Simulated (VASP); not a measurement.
# Ru (P6_3/mmc) under biaxial (0001) strain from −2 % to +2 %: normal strain, stress and strain energy with PBEsol

Ruthenium is a 4d transition metal whose partly filled d band binds close-packed layers into a stiff hexagonal crystal. Every member of the series is this same crystal, stretched or compressed equally along both directions of the (0001) plane and free to change its height.

The brief is a clamped Ru(0001) film, 5 nm thick, that is to carry the largest tensile strain in the series. Two limits are set: a film force of at most 60 N per metre of width, so that the substrate does not bend too far, and a stored elastic energy of at most 1 J/m², so that the drive towards peeling stays small. Stress and energy are calculated for the bulk crystal, with strain measured from the crystal relaxed with PBEsol.

## Calculations

The start is an entry of the ASE's table of reference states database. The crystal was relaxed with PBEsol. Equal strain is imposed in the (0001) plane; the strain along the normal is adjusted until the normal stress vanishes, and the atoms are relaxed with PBEsol. VASP 6.6.1, plane waves with PAW, cutoff 450 eV, no spin polarisation, no spin-orbit coupling, k mesh 25×25×14, static lattice. The same in all rows: band gap on the k mesh at PBEsol: 0.000 eV.

Notes on method and selection:

- Runs that did not converge, have known faults or may not be shown are not listed, and runs on Ansatz's PAW sets soft_1 and soft_2 are kept to separate tables.

Columns:

- strain (%): strain in the plane (tension positive).
- normal strain (%): strain along the normal.
- stress (GPa): in-plane stress, tension positive.
- strain energy (meV/atom): energy per atom above the relaxed crystal.

Input lines of one member:

```
PREC = Accurate
ENCUT = 450
EDIFF = 1E-07
NELM = 120
ISMEAR = 1
SIGMA = 0.15
LREAL = .FALSE.
ALGO = Normal
GGA = PS
NBANDS = 20
LASPH = .TRUE.
LORBIT = 11
KPAR = 2
IBRION = 1
NSW = 25
```

Command (options for logging and memory left out): `mpirun -np 2 vasp_std`

## The series

```
member  strain (%)  normal strain (%)  stress (GPa)  strain energy (meV/atom)
−2 %    −2.0        1.094              −16.53        26.59
−1.5 %  −1.5        0.827              −11.97        14.75
−1 %    −1.0        0.556              −7.72         6.53
−0.5 %  −0.5        0.278              −3.74         1.68
0 %     0.0         0.003              0.00          0.00
+0.5 %  0.5         −0.268             3.53          1.33
+1 %    1.0         −0.534             6.88          5.52
+1.5 %  1.5         −0.800             10.02         12.45
+2 %    2.0         −1.067             12.96         21.96
```

normal strain (%) against strain (%):

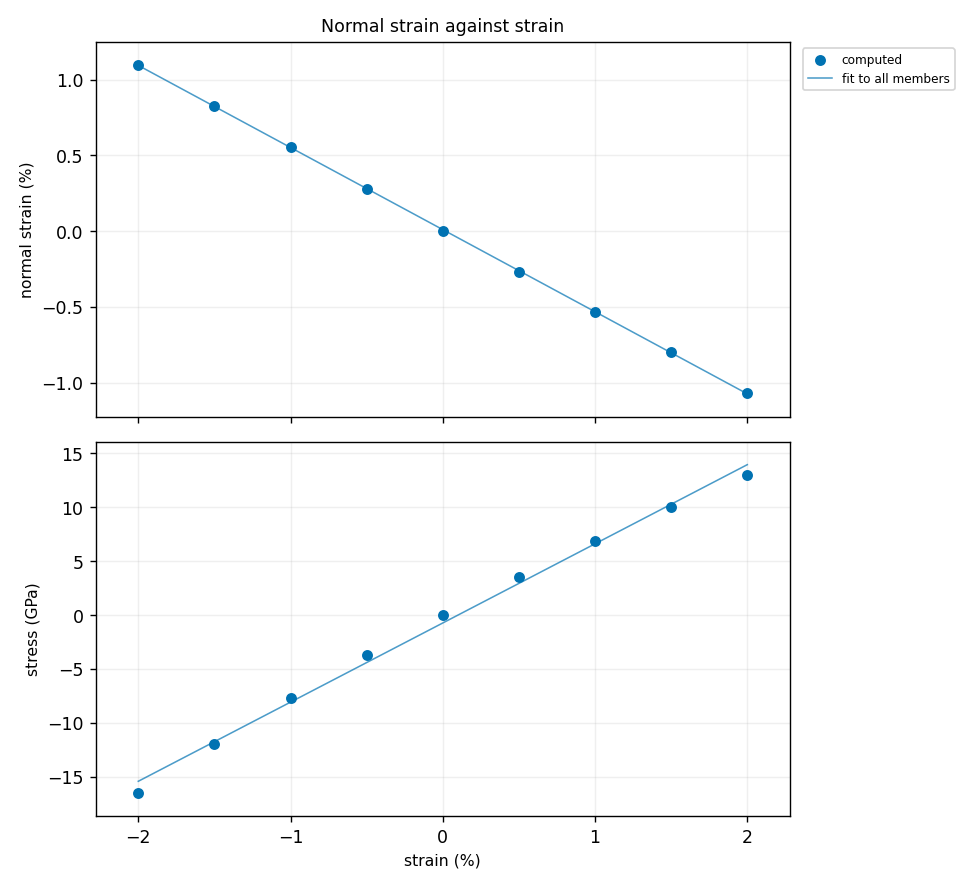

Least-squares fits to the whole series, with x = strain (%); R² and errors in the fitted variable (y, or ln y where the fit is in ln y):

```
y                  members  fit                      R²    rms residual  leave-one-out rms  the same for the mean of the others
normal strain (%)  9        y = 0.009889 − 0.5417 x  1.00  0.0047        0.0061             0.79
stress (GPa)       9        y = −0.7300 + 7.347 x    1.00  0.66          0.94               11
```

## Why the values move as they do

The normal strain follows the imposed strain almost in proportion. Between −0.5 % and +0.5 % its slope is (−0.268 − 0.278) / 1.0 = −0.546, close to the −0.5417 of the fit to all rows. For a hexagonal crystal with no normal stress this slope equals −2 C₁₃/C₃₃, so C₁₃/C₃₃ = 0.546 / 2 = 0.273. A slope of −2 would keep the volume constant; Ru is far from that, and its volume grows under tension.

The stress gives the biaxial modulus M = C₁₁ + C₁₂ − 2 C₁₃²/C₃₃. From the same two rows, M = (3.53 + 3.74) / 1.0 = 7.27 GPa per %, or 7.27 × 100 = 727 GPa. The series yields these two combinations, not the four constants one by one.

Stress divided by strain falls steadily from 16.53 / 2.0 = 8.27 GPa per % at −2 % to 12.96 / 2.0 = 6.48 at +2 %. This is ordinary anharmonicity: repulsion between atoms rises steeply as bonds shorten, while the restoring force weakens as they lengthen. Against M × strain, the stress is off by 3 % at ±0.5 %, by 5 to 6 % at ±1 %, and by 11 % (tension) and 14 % (compression) at ±2 %.

One quadratic term repairs most of this. Its coefficient follows from the rows at ±1.5 %: (10.02 − 11.97) / 2 / 1.5² = −0.43. With x the strain in %, stress = 7.27 x − 0.43 x² (GPa) misses the nine rows by 0.11 GPa rms, against 0.66 GPa for the straight line and 11 GPa for the mean of the other members.

The strain energy is quadratic once tension and compression are averaged: (1.68 + 1.33) / 2 / 0.5² = 6.02 and (26.59 + 21.96) / 2 / 2.0² = 6.07 meV/atom per %².

## Departures from the trend

Largest departures from the fit to the whole series:

```
member  normal strain (%)  fit     computed − fit  in rms residuals
+0.5 %  −0.268             −0.261  −0.007          1.5
0 %     0.003              0.010   −0.007          1.5
+2 %    −1.067             −1.074  +0.007          1.4
−1.5 %  0.827              0.822   +0.005          1.0
```

The normal strains depart from their line by at most 0.007 %, which is too little to interpret. The 0.003 % at zero imposed strain reflects a slight residual stress in the reference crystal.

The energies at small strain deserve more caution. Anharmonicity alone should make compression and tension cost the same as the strain shrinks. Their ratio does fall from 26.59 / 21.96 = 1.21 at 2 % to 6.53 / 5.52 = 1.18 at 1 %, but it rises again to 1.68 / 1.33 = 1.26 at 0.5 %. This points to a small term linear in strain, about −0.3 meV/atom per %, although the stress at zero strain is 0.00 GPa.

The likely cause is the finite plane-wave basis. At fixed cutoff it grows with the cell, a gain that the calculated stress leaves out, so the energy still falls slightly on stretching. Averaging +x and −x removes the term.

## Meeting the brief

The brief asks for tension, which leaves the four rows from +0.5 % to +2 %. Two device quantities are needed, with film thickness t = 5 nm and 1 GPa·nm = 1 N/m = 1 J/m².

Film force per width: F = stress × t.

Stored energy per area: W = t × 2 ∫ stress d(strain). The factor 2 counts the two in-plane directions; the normal direction does no work because its stress vanishes. The integral is taken by the trapezoidal rule over the rows, with strain as a plain fraction. Sums are carried unrounded. W refers to the unstrained area, and the change of cell dimensions is neglected, an error of about 1 %.

- +0.5 %: F = 3.53 × 5 = 17.7 N/m; W = 5 × 0.005 × 3.53 = 0.09 J/m².
- +1 %: F = 6.88 × 5 = 34.4 N/m; W = 0.09 + 5 × 0.005 × (3.53 + 6.88) = 0.35 J/m².
- +1.5 %: F = 10.02 × 5 = 50.1 N/m; W = 0.35 + 5 × 0.005 × (6.88 + 10.02) = 0.77 J/m².
- +2 %: F = 12.96 × 5 = 64.8 N/m; W = 0.77 + 5 × 0.005 × (10.02 + 12.96) = 1.35 J/m².

The energy column supports the scaling: 21.96 / 12.45 = 1.76 between the last two rows, against 1.35 / 0.77 = 1.75 here.

For elastic moduli of transition metals, PBEsol on a static lattice is typically good to roughly 10 %. At +1.5 % this gives 45 to 55 N/m, and from 0.77 × 0.9 = 0.69 to 0.77 × 1.1 = 0.85 J/m², inside both limits. At +2 % the force, 58 to 71 N/m, could just pass, but the energy, 1.2 to 1.5 J/m², fails throughout.

The pick is +1.5 %, and the runner-up is +1 %. With the calculated stresses, a film thicker than 60 / 10.02 = 6.0 nm would hand the choice to +1 %, and one thinner than about 3.7 nm would admit +2 %. Misfit dislocations could also overturn the pick: if they form at 10 GPa, the film no longer holds the imposed strain. Surface stress, which a bulk calculation leaves out, typically adds a few N/m per metal face and so narrows the margin in force.

## Closing remarks

Across these rows the normal strain is linear to within 0.007 %. The stress is linear to 3 % at ±0.5 % and needs a quadratic term at larger strain. An R² of 1.00 does not reveal this; the intercept of −0.7300 GPa, where the calculated stress is 0.00, does.

The omitted effect that rivals the tensile range of the table is plastic relief. The perfect crystal has no dislocations, whereas in a real film they can lower a tension of 13 GPa to roughly one or a few GPa, and the stored energy with it. Thermal motion is a smaller matter: it usually softens the moduli of such a metal by a few per cent at room temperature.

[Logs are printed without paths, hosts, clocks, repeated set-up lines and the standing remarks that a program may print on its own settings, such as how far it seeks lower states.]
